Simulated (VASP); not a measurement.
# La₂O₃ (La₂O₃-type): how a and c shift between eight density functionals, from LDA to RPBE

When we match a lanthanum oxide film to a substrate, we need a from the calculation; when we convert layer counts into thickness, we need c. If the functional misjudged both axes by the same fraction, one scale factor would repair the cell. We therefore compare the relaxed a and c of bulk La₂O₃ at eight levels, all with the same cutoff and k mesh and with PAW data sets made for PBE. The table holds no measured cell, so shifts are taken between functionals, and nothing here ranks them by accuracy. The two axes mostly lengthen together, but c changes by nearly three times the fraction that a does, and some changes of functional move c almost alone.

## Systems and settings

One crystal, La2O3 (La2O3-type) (known phase); cell and atoms relaxed at zero pressure inside the space group at each level. Program: VASP 6.6.1, plane waves and PAW (data sets made for PBE also in the LDA runs of La2O3; in all, for PBE of release 64), scalar-relativistic without spin-orbit coupling, no spin polarisation. Occupations: Fermi-Dirac smearing of 0.05 eV. Times are rough, from shared x86 server processors. The same in all rows: cutoff and k mesh: 560 eV, k 7×7×4.

Notes on method and selection:

- The relaxation keeps the space group of the starting structure, unless a run's flaw says otherwise, so it can't find a distortion to lower symmetry.
- VASP relaxes on the plane waves of its starting cell; rows come from the last relaxation, in which the volume moved by 5 % or less.
- D3(BJ), D4 are atom-based dispersion corrections added to the functional. rVV10, optB88-vdW hold a nonlocal correlation term.
- On the k meshes used the crystal has a Kohn-Sham gap at every level or point; a mesh can miss a band crossing between its points.
- Where a crystal was run more than once at a level, the run on the densest mesh (metals) or with the highest cutoff is shown; cells that lost their symmetry or did not come to rest are left out.
- Where a cited cell is compared, it is used only if the database entry bears it out to 0.6 % or a second determination confirms it.
- A table whose volumes refer to PBE has no confirmed cited cell, or one whose c/a every level misses to one side by over 1.2 %.
- Non-spherical gradient terms in the PAW spheres (LASPH) were on in all rows.
- Runs that did not converge, have known faults or may not be shown are not listed, and runs on Ansatz's PAW sets soft_1 and soft_2 are kept to separate tables.

Columns:

- a (Å): lattice constant a of the conventional cell.
- c (Å): lattice constant c of the conventional cell.
- c/a: axial ratio c/a.
- volume against PBE (%): relaxed volume over the PBE volume, minus one.
- volume (Å³): relaxed volume per atom.
- cost per iteration (core-s): processor time per electronic iteration, mean over the relaxation, shared machines, rough.

## Data

| member | a (Å) | c (Å) | c/a | volume against PBE (%) | volume (Å³) | cost per iteration (core-s) |
| --- | --- | --- | --- | --- | --- | --- |
| LDA | 3.8841 | 5.9493 | 1.5317 | −6.34 | 15.545 | 12 |
| PBE+D3(BJ) | 3.9187 | 6.0989 | 1.5564 | −2.27 | 16.222 | 10 |
| r2SCAN+D4 | 3.9232 | 6.0881 | 1.5518 | −2.22 | 16.230 | 34 |
| r2SCAN+rVV10 | 3.9256 | 6.0760 | 1.5478 | −2.29 | 16.218 | 66 |
| r2SCAN | 3.9308 | 6.1178 | 1.5564 | −1.36 | 16.373 | 51 |
| optB88-vdW | 3.9366 | 6.1303 | 1.5573 | −0.87 | 16.454 | 29 |
| PBE | 3.9372 | 6.1821 | 1.5702 | 0.00 | 16.598 | 15 |
| RPBE | 3.9602 | 6.2801 | 1.5858 | 2.78 | 17.059 | 10 |

c (Å) against a (Å):

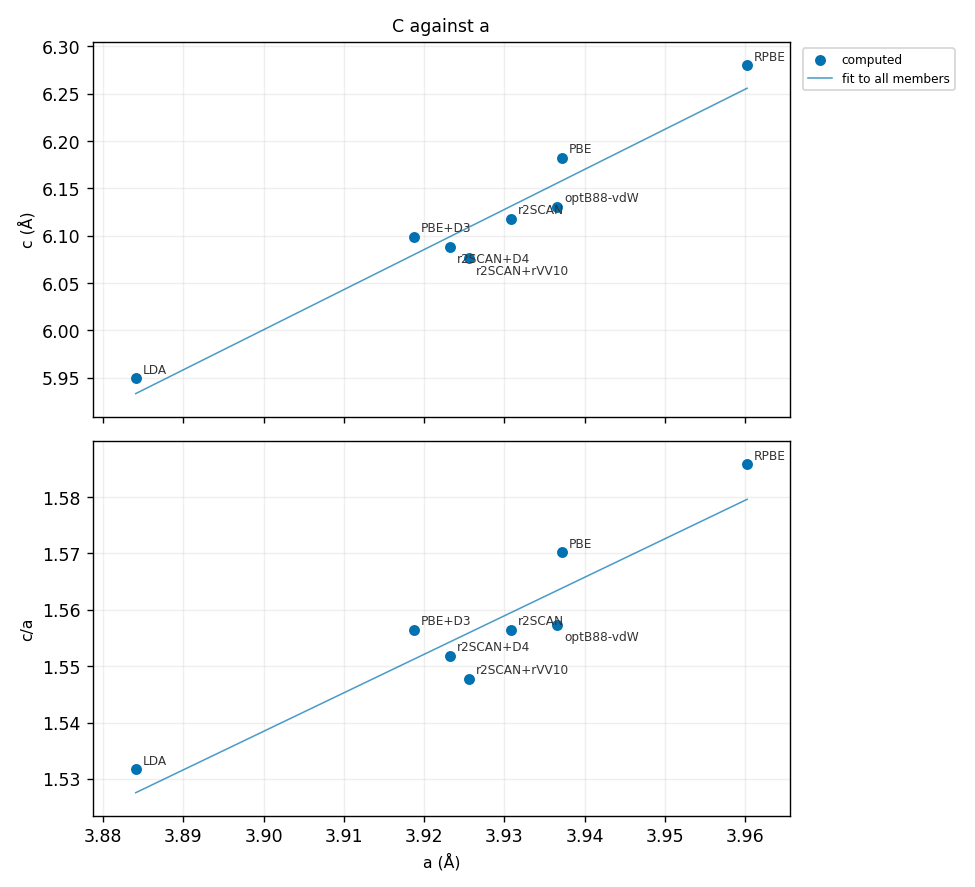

Least-squares fits to the whole series, with x = a (Å); R² and errors in the fitted variable (y, or ln y where the fit is in ln y):

| y | members | fit | R² | rms residual | leave-one-out rms | the same for the mean of the others |
| --- | --- | --- | --- | --- | --- | --- |
| c (Å) | 8 | y = −10.524 + 4.2371 x | 0.94 | 0.022 | 0.033 | 0.10 |
| c/a | 8 | y = −1.128 + 0.6837 x | 0.86 | 0.0055 | 0.0083 | 0.017 |

## Reading the trend

From LDA to RPBE, a grows by 0.0761 / 3.8841 = 2.0 % and c by 0.3308 / 5.9493 = 5.6 %. The order is not strict: from PBE+D3(BJ) to r2SCAN+rVV10, a rises by 0.0069 Å while c falls by 0.0229 Å.

A simple elastic model accounts for the unequal shares. It rests on three assumptions: the crystal responds linearly, its stiffness is the same at every level, and a change of functional acts like a uniform stress p, counted positive for tension and negative for pressure.

Let εa and εc be the fractional changes of a and c from a reference cell. With the hexagonal form of the elastic constants, which also holds for this trigonal crystal when both in-plane directions stretch equally, the energy per volume is

u = (C₁₁ + C₁₂) εa² + 2 C₁₃ εa εc + ½ C₃₃ εc² − p (2 εa + εc).

Setting the derivatives with respect to εa and εc to zero gives

(C₁₁ + C₁₂) εa + C₁₃ εc = p

2 C₁₃ εa + C₃₃ εc = p.

Subtracting one from the other removes p:

εc / εa = k = (C₁₁ + C₁₂ − 2 C₁₃) / (C₃₃ − C₁₃).

The strength of the push drops out, and every functional should fall on one line,

c = c₀ + m (a − a₀), with m = k c₀ / a₀.

The parameters are the reference cell (a₀, c₀) and k. A value of k above one means that c is the softer axis under uniform pressure. That is plausible here, because La–O slabs alternate with oxygen layers along c, and the La heights can adjust as the spacing changes. The elastic constants are not in the table, so k is taken from the cells and this origin of its size remains a conjecture.

## Testing the model

We fix the line on LDA and PBE:

m = (6.1821 − 5.9493) / (3.9372 − 3.8841) = 0.2328 / 0.0531 = 4.384

k = 4.384 × 3.8841 / 5.9493 = 2.86

The least-squares slope over all eight members, 4.2371, is close to this. Four other members follow from their a alone, with lengths in Å.

- **RPBE:** 5.9493 + 4.384 × (3.9602 − 3.8841) = 6.2829. The table has 6.2801, a difference of −0.003.
- **PBE+D3(BJ):** 5.9493 + 4.384 × (3.9187 − 3.8841) = 6.1010. The table has 6.0989, a difference of −0.002.
- **r2SCAN:** 5.9493 + 4.384 × (3.9308 − 3.8841) = 6.1540. The table has 6.1178, a difference of −0.036.
- **optB88-vdW:** 5.9493 + 4.384 × (3.9366 − 3.8841) = 6.1795. The table has 6.1303, a difference of −0.049.

The first two agree more closely than relaxation on a fixed set of plane waves warrants, so we read them only as lying on the line.

Over all six members not used to fix the line, the rms miss is roughly 0.036 Å, against an rms scatter of roughly 0.069 Å around their own mean. Much of that gain comes from RPBE. For the other five the miss is roughly 0.04 Å and the scatter only about 0.02 Å, so the line describes the broad drift from LDA to RPBE but does not predict c within the middle group.

## Where the trend breaks

Largest departures from the fit to the whole series:

| member | c (Å) | fit | computed − fit | in rms residuals |
| --- | --- | --- | --- | --- |
| r2SCAN+rVV10 | 6.0760 | 6.1092 | −0.0332 | 1.5 |
| optB88-vdW | 6.1303 | 6.1558 | −0.0255 | 1.2 |
| RPBE | 6.2801 | 6.2558 | +0.0243 | 1.1 |
| PBE | 6.1821 | 6.1583 | +0.0238 | 1.1 |

Four members lie clearly below the LDA–PBE line. Two are r2SCAN and optB88-vdW; the others follow in the same way, with lengths in Å:

- **r2SCAN+D4:** 5.9493 + 4.384 × (3.9232 − 3.8841) = 6.1207, and 6.0881 − 6.1207 = −0.033.
- **r2SCAN+rVV10:** 5.9493 + 4.384 × (3.9256 − 3.8841) = 6.1312, and 6.0760 − 6.1312 = −0.055.

At least one assumption must fail: the linear response, the common stiffness or the uniform push. optB88-vdW has the a of PBE to within 0.0006 Å, yet its c is 0.0518 Å shorter. Counted from LDA, its own slope is (6.1303 − 5.9493) / (3.9366 − 3.8841) = 3.448, which gives k = 3.448 × 3.8841 / 5.9493 = 2.25 instead of 2.86. A crystal somewhat stiffer along c at this level could give that, and so could an extra inward pull along c. The cells alone cannot tell the two apart.

A dispersion term is not the common cause. r2SCAN without one is already low, D4 leaves its departure nearly unchanged, and PBE+D3(BJ) stays on the line. Adding rVV10 to r2SCAN does deepen the departure, by about 0.02 Å, so that term shortens c by more than the line allows for its change in a.

## Cost against accuracy

The three r2SCAN-based levels take 34 to 66 core-seconds per electronic iteration, against 10 to 15 for LDA, PBE, RPBE and PBE+D3(BJ). The extra time buys a different cell shape, with c shorter at a given a; whether that shape is closer to the real crystal is not shown in the table. The D3(BJ) correction shortens the c of PBE by 0.0832 Å at no visible extra cost. For a first check of how far the cell depends on the functional, LDA and RPBE span the full range of both axes at the cheap end.

## Conclusions

Between LDA and RPBE, c takes the larger fractional change, and a single scale factor for both axes would be wrong. The line drawn through LDA and PBE also passes close to PBE+D3(BJ) and RPBE, while the other four members fall below it. With one further converged run not tabled, this split describes only these eight members.

The slope must not be used for strained films. There the substrate imposes a, and c normally responds with the opposite sign. Uptake of water, which turns the oxide into hydroxide, lies outside this comparison altogether.
